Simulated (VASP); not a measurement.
# Transverse strain, stress and strain energy of zinc-blende BP under uniaxial [001] stress at the LDA level

Boron phosphide joins two elements of similar electronegativity in a tetrahedral network of short, strongly covalent bonds, so that both stretching and bending of the bonds cost much energy. How such a crystal answers a load along a cube axis matters for strained films and for heat-spreading layers, where mismatch with a substrate sets the stress. This section examines how the transverse strain, the axial stress and the strain energy follow an imposed [001] strain between −2 % and +2 %, which moduli result, and where departures from linear elasticity appear. All strains and energies are measured from the crystal relaxed with LDA, for a static lattice; tension is positive, and the stress across the axis is relaxed to zero.

## Set-up

The start is a typed prototype cell. The crystal was relaxed with LDA. Strain is imposed along [001]; the strain across the axis is adjusted until the stress across it vanishes, and the atoms are relaxed with LDA. VASP 6.6.1, plane waves with PAW, cutoff 480 eV, no spin polarisation, no spin-orbit coupling, k mesh 11×11×11, static lattice.

Notes on method and selection:

- Runs that did not converge, have known faults or may not be shown are not listed, and runs on Ansatz's PAW sets soft_1 and soft_2 are kept to separate tables.

Columns:

- strain (%): strain along the axis (tension positive).
- gap (eV): band gap on the k mesh at LDA.
- transverse strain (%): strain across the axis.
- stress (GPa): stress along the axis, tension positive.
- strain energy (meV/atom): energy per atom above the relaxed crystal.

Input lines of one member:

```
PREC = Accurate
ENCUT = 480
EDIFF = 1E-07
NELM = 120
ISMEAR = 0
SIGMA = 0.02
LREAL = .FALSE.
ALGO = Normal
GGA = CA
NBANDS = 10
LASPH = .TRUE.
LORBIT = 11
KPAR = 3
IBRION = 1
NSW = 25
```

Command (options for logging and memory left out): `mpirun -np 3 vasp_std`

## The series

| member | strain (%) | gap (eV) | transverse strain (%) | stress (GPa) | strain energy (meV/atom) |
| --- | --- | --- | --- | --- | --- |
| −2 % | −2.0 | 0.798 | 0.406 | −6.49 | 4.67 |
| −1.5 % | −1.5 | 0.893 | 0.300 | −4.88 | 2.63 |
| −1 % | −1.0 | ? | ? | ? | ? |
| −0.5 % | −0.5 | 1.082 | 0.097 | −1.63 | 0.30 |
| 0 % | 0.0 | 1.176 | 0.000 | 0.00 | 0.00 |
| +0.5 % | 0.5 | 1.137 | −0.092 | 1.63 | 0.27 |
| +1 % | 1.0 | 1.098 | −0.182 | 3.27 | 1.12 |
| +1.5 % | 1.5 | 1.060 | −0.269 | 4.91 | 2.54 |
| +2 % | 2.0 | 1.022 | −0.353 | 6.55 | 4.54 |

Cells marked ? are withheld until the estimate has been made.

Least-squares fits to the members shown, with x = strain (%); R² and errors in the fitted variable (y, or ln y where the fit is in ln y):

| y | members | fit | R² | rms residual | leave-one-out rms | the same for the mean of the others |
| --- | --- | --- | --- | --- | --- | --- |
| transverse strain (%) | 8 | y = 0.01213 − 0.1900 x | 1.00 | 0.0099 | 0.015 | 0.29 |
| stress (GPa) | 8 | y = 0.01239 + 3.261 x | 1.00 | 0.012 | 0.018 | 4.9 |

## What drives the series

The stress is close to linear over the whole range. Between the end members its slope is (6.55 + 6.49) / 4.0 = 3.26 GPa per 1 % of strain, so Young's modulus E along [001] is 3.26 × 100 = 326 GPa. The corresponding slope of the transverse strain gives Poisson's ratio, ν = (0.406 + 0.353) / 4.0 = 0.190. With 1 − 2 × 0.190 = 0.620, 1 − 0.190 = 0.810 and 1 + 0.190 = 1.190, these two numbers fix the bulk modulus of a cubic crystal, E / [3(1 − 2ν)] = 326 / (3 × 0.620) = 175 GPa, and also C₁₁ = E(1 − ν) / [(1 + ν)(1 − 2ν)] = 326 × 0.810 / (1.190 × 0.620) = 358 GPa and C₁₂ = C₁₁ν / (1 − ν) = 358 × 0.190 / 0.810 = 84 GPa. The shear modulus C₄₄ does not enter this loading.

Nonlinearity shows first in the transverse strain. Its ratio to the axial strain is 0.406 / 2.0 = 0.203 at −2 % but 0.353 / 2.0 = 0.177 at +2 %, about 7 % to either side of the mean, whereas the two stresses differ in size by only 1 %. Because symmetry holds the atoms at their ideal fractional positions, the bond length follows from the cell alone, in proportion to √[(1 + s)² + 2(1 + t)²] with s the axial and t the transverse strain as fractions: it grows by about 0.44 % at +2 % and shrinks by about 0.39 % at −2 %. A bond that is softer when stretched than when compressed would act in this direction, taking up more of a tension by lengthening and leaving less to lateral contraction. Rotation of rigid bonds would bend the curve the other way.

The strain energy is nearly parabolic, but compression costs slightly more than tension: 4.67 against 4.54 meV/atom at 2 %, and 0.30 against 0.27 meV/atom at 0.5 %. This difference grows roughly in proportion to the strain, not to its cube as an anharmonic term would. The likely cause is the plane-wave basis, which at fixed cutoff gains functions as the cell expands and so places the energy minimum at a slightly larger cell than the zero of stress.

## Blind estimate

Plain estimates from the members shown:

- −1 %, fit at x = −1.0: 0.202 %
- −1 %, straight-line interpolation between −1.5 % and −0.5 %: w = (−1.0 − (−1.5)) / (−0.5 − (−1.5)) = 0.500, so 0.300 + 0.500 × (0.097 − 0.300) = 0.199 %

The straight-line fit is the weaker of the two plain estimates for −1 %, since it gives a transverse strain of 0.012 % at zero load, where the value is zero by definition. Interpolation between the neighbours is better but lies slightly too high, because the curve is convex: the lateral expansion grows faster than in proportion as compression increases.

A cubic through the two nearest members on each side includes this curvature. For evenly placed neighbours at distances of 0.5 % and 1.0 %, it weights the inner pair by 2/3 each and the outer pair by −1/6 each. Applied to +1 %, it gives 2/3 × (−0.092 − 0.269) − 1/6 × (0.000 − 0.353) = −0.182 %, in agreement with the table. For −1 % it gives 2/3 × (0.300 + 0.097) − 1/6 × (0.406 + 0.000) = 0.197 %.

No further shift is called for, as the stress runs smoothly through this interval and the atoms have no internal displacement that could set in.

One successful test is too little to set the error, so the scatter of the small strains is used. The transverse strains at ±0.5 % add up to 0.005 %, whereas the curvature seen at ±2 % implies (0.406 − 0.353) / 16 = 0.003 %. The mismatch of 0.002 % in a sum of two rows corresponds to about 0.001 % per row, which is taken as the standard deviation.

**Committed estimate, −1 %: transverse strain = 0.197 ± 0.001 %.**

## Outcome

| member | strain (%) | gap (eV) | transverse strain (%) | stress (GPa) | strain energy (meV/atom) |
| --- | --- | --- | --- | --- | --- |
| −1 % | −1.0 | 0.988 | 0.197 | −3.26 | 1.18 |

| member | estimate | transverse strain (%) | computed | estimate − computed | miss in error bars |
| --- | --- | --- | --- | --- | --- |
| −1 % | committed | 0.197 | 0.197 | 0.000 | 0.0 |
| −1 % | fit | 0.202 | 0.197 | +0.005 |  |
| −1 % | interpolation | 0.199 | 0.197 | +0.002 |  |

transverse strain (%) against strain (%):

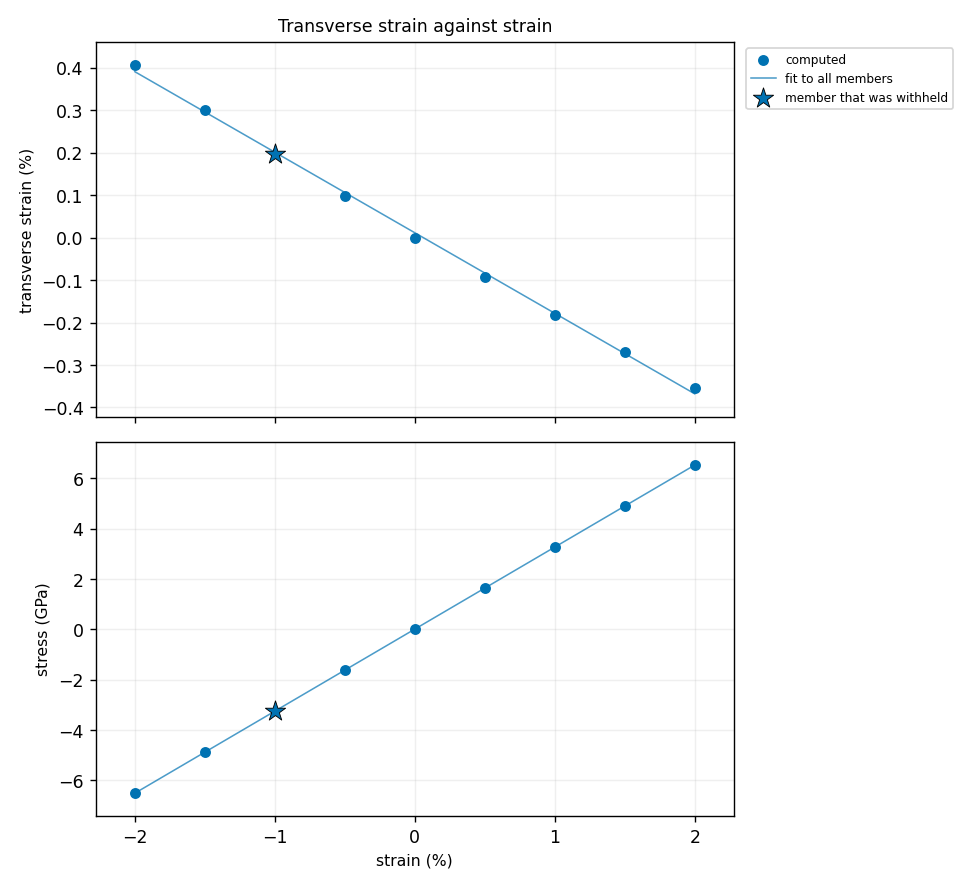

The computed transverse strain at −1 % is 0.197 %, equal to the estimate to the printed digits and so inside the error bar of 0.001 %. Both plain estimates came out too high, interpolation by 0.002 % and the straight-line fit by 0.005 %, as expected for a convex curve.

The reading of the error was less sound. The mismatch of 0.002 % at ±0.5 % had been taken as random scatter between rows. At ±1 % the transverse strains add up to 0.197 − 0.182 = 0.015 %, against (0.406 − 0.353) / 4 = 0.013 % expected from the curvature at ±2 %, so the same excess returns. A residual stress in the reference cell, too small to show in the table, would shift all strained rows alike and so explain this better than scatter.

The result confirms the smooth curvature but does not test its assignment to bonds that soften on stretching. The new strain energy does bear on the basis-set argument: compression costs 1.18 − 1.12 = 0.06 meV/atom more than tension at 1 %, about half the 0.13 meV/atom at 2 %, whereas a cubic term would leave only an eighth.

## Exceptions

Least-squares fits to the whole series, with x = strain (%); R² and errors in the fitted variable (y, or ln y where the fit is in ln y):

| y | members | fit | R² | rms residual | leave-one-out rms | the same for the mean of the others |
| --- | --- | --- | --- | --- | --- | --- |
| transverse strain (%) | 9 | y = 0.01156 − 0.1897 x | 1.00 | 0.0095 | 0.014 | 0.28 |
| stress (GPa) | 9 | y = 0.011111 + 3.2617 x | 1.00 | 0.012 | 0.017 | 4.7 |

Largest departures from the fit to the whole series:

| member | transverse strain (%) | fit | computed − fit | in rms residuals |
| --- | --- | --- | --- | --- |
| −2 % | 0.406 | 0.391 | +0.015 | 1.6 |
| +2 % | −0.353 | −0.368 | +0.015 | 1.6 |
| 0 % | 0.000 | 0.012 | −0.012 | 1.2 |
| −0.5 % | 0.097 | 0.106 | −0.009 | 1.0 |

No member stands out: the largest departures are the curvature that a straight line leaves over. The fit lies below the computed values at both ends, by 0.015 % at −2 % and +2 %, and above them near the middle, by 0.012 % at zero strain and 0.009 % at −0.5 %. The departure at zero strain is simply the intercept of the fit, since the transverse strain there is zero by definition.

## Closing remarks

Between −2 % and +2 %, linear elasticity describes the axial stress to about 1 %, but the ratio of transverse to axial strain only to about 7 %. With x the axial strain in per cent, the transverse strain in per cent is −0.190 x + 0.0066 x², where the second coefficient is (0.406 − 0.353) / 8. This reproduces all nine rows to within about 0.001 %, against an rms residual of 0.0095 % for the straight line, and a further member inside the range can be estimated about as well.

In practice, a tensile stress of 1 GPa along [001] stretches the crystal by 1 / 3.26 = 0.307 % and narrows it by 0.190 × 0.307 = 0.058 %.

Zero-point and thermal motion, absent from the static lattice, would be expected to lower Young's modulus slightly at room temperature, chiefly because they expand the lattice and so weaken the bonds.

[Logs are printed without paths, hosts, clocks, repeated set-up lines and the standing remarks that a program may print on its own settings, such as how far it seeks lower states.]
